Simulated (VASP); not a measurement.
# Pressure, energy and band gap of evenly scaled WSe2 (P6_3/mmc) against volume with rev-vdW-DF2

A transistor channel or photodetector made of layered WSe2 sits under strain from its substrate and contacts, and its band gap shifts with that strain. Before treating a real strain state I take the simplest distortion, an even scaling of the whole cell, and follow what it costs in pressure and energy and what it does to the gap. Seven volumes were calculated with rev-vdW-DF2, from about 6% below to 6% above the minimum of the fitted energy curve, 20.54 Å³ per atom. Volume changes are counted from that minimum, energies per atom from the lowest row, and pressure is positive when the cell is compressed. The gap is the smallest one on the k mesh, and it is indirect.

## Computational details

A cell from a diffraction database, relaxed at this level and then scaled evenly, fractional positions kept. VASP 6.6.1, plane waves with PAW, rev-vdW-DF2, cutoff 400 eV, k mesh 8×8×2, no spin polarisation, no spin-orbit coupling, static lattice. A Birch-Murnaghan fit to the energies has its minimum at 20.54 Å³ per atom.

Notes on method and selection:

- The pressure is that of a finite plane-wave basis, so it need not vanish exactly at the minimum of the energy.
- Only series whose fit has its minimum inside the range and an error under 0.5 meV per atom are shown.
- Where rows or columns differ in functional or spin-orbit coupling, non-spherical gradient terms in the PAW spheres (LASPH) may be on in some and off in others.
- Runs that did not converge, have known faults or may not be shown are not listed, and runs on Ansatz's PAW sets soft_1 and soft_2 are kept to separate tables.

Columns:

- volume change (%): volume relative to the fitted equilibrium volume.
- pressure (GPa): pressure from the stress tensor (positive: compressed).
- energy (meV/atom): energy per atom above the lowest point of the series.
- gap (eV): smallest gap on the k mesh.

Input lines of one member:

```
PREC = Accurate
ENCUT = 400
EDIFF = 1E-06
NELM = 100
ISMEAR = 0
SIGMA = 0.05
LREAL = .FALSE.
ALGO = Normal
GGA = MK
AGGAC = 0
LUSE_VDW = .TRUE.
PARAM1 = 0.1234
PARAM2 = 0.711357
ZAB_VDW = -1.8867
LASPH = .TRUE.
```

Command (options for logging and memory left out): `mpirun -np 4 vasp_std`

## The series

| member | volume change (%) | pressure (GPa) | energy (meV/atom) | gap (eV) |
| --- | --- | --- | --- | --- |
| 19.30 Å³ | −6.03 | 9.93 | 36.5 | 1.037 |
| 19.71 Å³ | −4.03 | 6.24 | 15.7 | 1.051 |
| 20.12 Å³ | −2.03 | 2.94 | 3.8 | 1.062 |
| 20.53 Å³ | −0.03 | −0.01 | 0.0 | 1.072 |
| 20.94 Å³ | 1.97 | −2.65 | 3.3 | 1.079 |
| 21.35 Å³ | 3.96 | −5.01 | 13.1 | 1.085 |
| 21.76 Å³ | 5.96 | −7.12 | 28.5 | 1.089 |

pressure (GPa) against volume change (%):

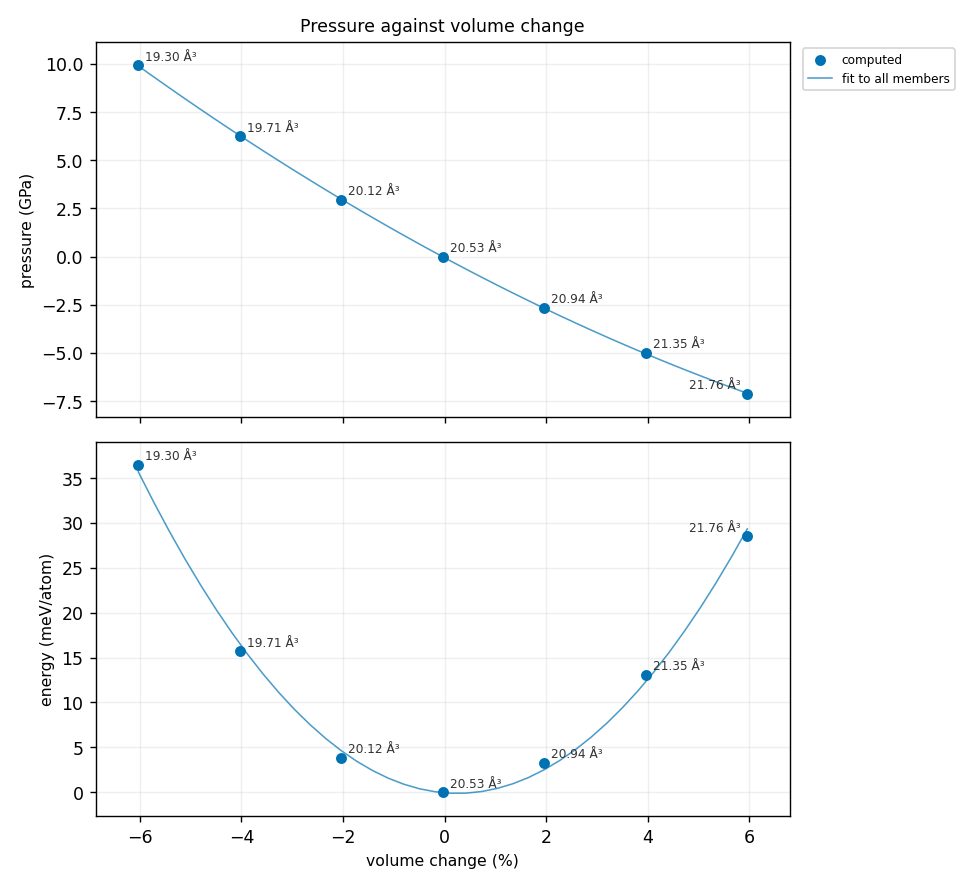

Least-squares fits to the whole series, with x = volume change (%); R² and errors in the fitted variable (y, or ln y where the fit is in ln y):

| y | members | fit | R² | rms residual | leave-one-out rms | the same for the mean of the others |
| --- | --- | --- | --- | --- | --- | --- |
| pressure (GPa) | 7 | y = −0.055516 − 1.4135 x + 0.039206 x² | 1.00 | 0.032 | 0.086 | 6.6 |
| energy (meV/atom) | 7 | y = −0.06311 − 0.4681 x + 0.9054 x² | 1.00 | 0.75 | 2.0 | 15 |

## What drives the series

From the smallest cell to the largest, the pressure falls from 9.93 to −7.12 GPa and the gap widens from 1.037 to 1.089 eV. The energy rises on both sides of the minimum, more steeply under compression: 36.5 meV per atom at −6.03% against 28.5 at 5.96%. Repulsion between closed shells and the stiffness of the W–Se bonds both grow as distances shorten, which gives this asymmetry.

For pressure and energy I make three assumptions. The pressure is zero at the energy minimum. It is the negative slope of energy against volume, P = −dE/dV. The stiffness against even scaling, −V dP/dV, rises linearly with pressure as B + B′P.

Integrating the third assumption from the minimum V₀ gives P = (B/B′)[(V₀/V)^B′ − 1]. With x the volume change in per cent, expansion to second order gives

P = −a x + b x², with a = B/100 and b = B(1 + B′)/20000.

Integrating once more over volume gives the energy,

E = c (a x²/2 − b x³/3), with c = 6.24 × 20.54 / 100 = 1.28 meV per GPa and per cent,

where 6.24 converts GPa Å³ to meV. Two parameters therefore serve both columns once V₀ is known, and the energies test constants fixed on pressures.

The gap needs a separate account. The valence band maximum lies at Γ, in states with much Se p_z and W d_z² character. Compression increases their overlap across the space between the layers and pushes this edge up, which narrows the gap. Shorter W–Se bonds act the other way on the smallest direct gap, which widens on compression. I take the indirect gap to be the net result of two such opposing shifts, though the columns do not list the band edges.

## Testing the model

I fix the two constants on the pressures of the end members, 19.30 Å³ (−6.03%) and 21.76 Å³ (5.96%). Dividing pressure by volume change gives 9.93 / 6.03 = 1.647 and 7.12 / 5.96 = 1.195, both in GPa per per cent and without sign. Then

b = (1.647 − 1.195) / (6.03 + 5.96) = 0.0377
a = 1.195 + 0.0377 × 5.96 = 1.420

These correspond to B = 100 × 1.420 = 142 GPa and B′ = 20000 × 0.0377 / 142 − 1 = 4.3.

The pressures of four other members follow, in GPa:

- 19.71 Å³: 1.420 × 4.03 + 0.0377 × 4.03² = 6.33; table 6.24.
- 20.12 Å³: 1.420 × 2.03 + 0.0377 × 2.03² = 3.04; table 2.94.
- 20.94 Å³: −1.420 × 1.97 + 0.0377 × 1.97² = −2.65; table −2.65.
- 21.35 Å³: −1.420 × 3.96 + 0.0377 × 3.96² = −5.03; table −5.01.

For the energy the coefficients are 1.28 × 1.420 / 2 = 0.909 and 1.28 × 0.0377 / 3 = 0.0161. In meV per atom:

- 19.71 Å³: 0.909 × 4.03² + 0.0161 × 4.03³ = 15.8; table 15.7.
- 20.12 Å³: 0.909 × 2.03² + 0.0161 × 2.03³ = 3.9; table 3.8.
- 20.94 Å³: 0.909 × 1.97² − 0.0161 × 1.97³ = 3.4; table 3.3.
- 21.35 Å³: 0.909 × 3.96² − 0.0161 × 3.96³ = 13.3; table 13.1.

The energies entered the constants only through the position of the minimum, V₀, so this agreement, within about 0.2 meV per atom, shows that the stress tensor and the total energies are closely consistent.

## Where the trend breaks

The pressure model is too high by 0.09 and 0.10 GPa at −4.03% and −2.03%, yet within 0.02 GPa at 1.97% and 3.96%. Two assumptions fail slightly. The stress of a finite plane-wave basis is not zero at the energy minimum; the quadratic fit puts it at about −0.06 GPa there. The expansion also stops at second order. The two errors add under compression and nearly cancel under expansion.

A gap linear in volume fails more visibly. A line through the end members gives 1.037 + 0.052 × 6.00 / 11.99 = 1.063 eV at −0.03%, which is 0.009 eV below the table, out of a total change of 0.052 eV. The assumption at fault is a constant shift per per cent: successive steps of about 2% widen the gap by 0.014 eV at first and by only 0.004 eV at the end. If the net shift is a small difference between larger opposing ones, a modest weakening of the interlayer overlap could cause this.

## Conclusions and limits

Within about 6% of the minimum, two constants reproduce the pressure to about 0.1 GPa and the energy to about 0.4 meV per atom. They belong to even scaling with fixed fractional positions. A crystal free to relax would close the space between its layers first and be softer, roughly by a factor of two or more.

The gap changes by only 0.052 eV over the series, and two omitted effects are larger. A functional of this kind usually puts gaps too low, roughly by a few tenths of an eV. Spin–orbit coupling in the W 5d states would narrow the gap, by roughly 0.1 eV. The mesh also misses the conduction band minimum between Γ and K, so at the relaxed volume the tabled gap is too wide for this level. I would use the direction of the gap's change under even scaling, not its absolute value, and would check that direction on a mesh that includes the conduction band minimum.

[Logs are printed without paths, hosts, clocks, repeated set-up lines and the standing remarks that a program may print on its own settings, such as how far it seeks lower states.]
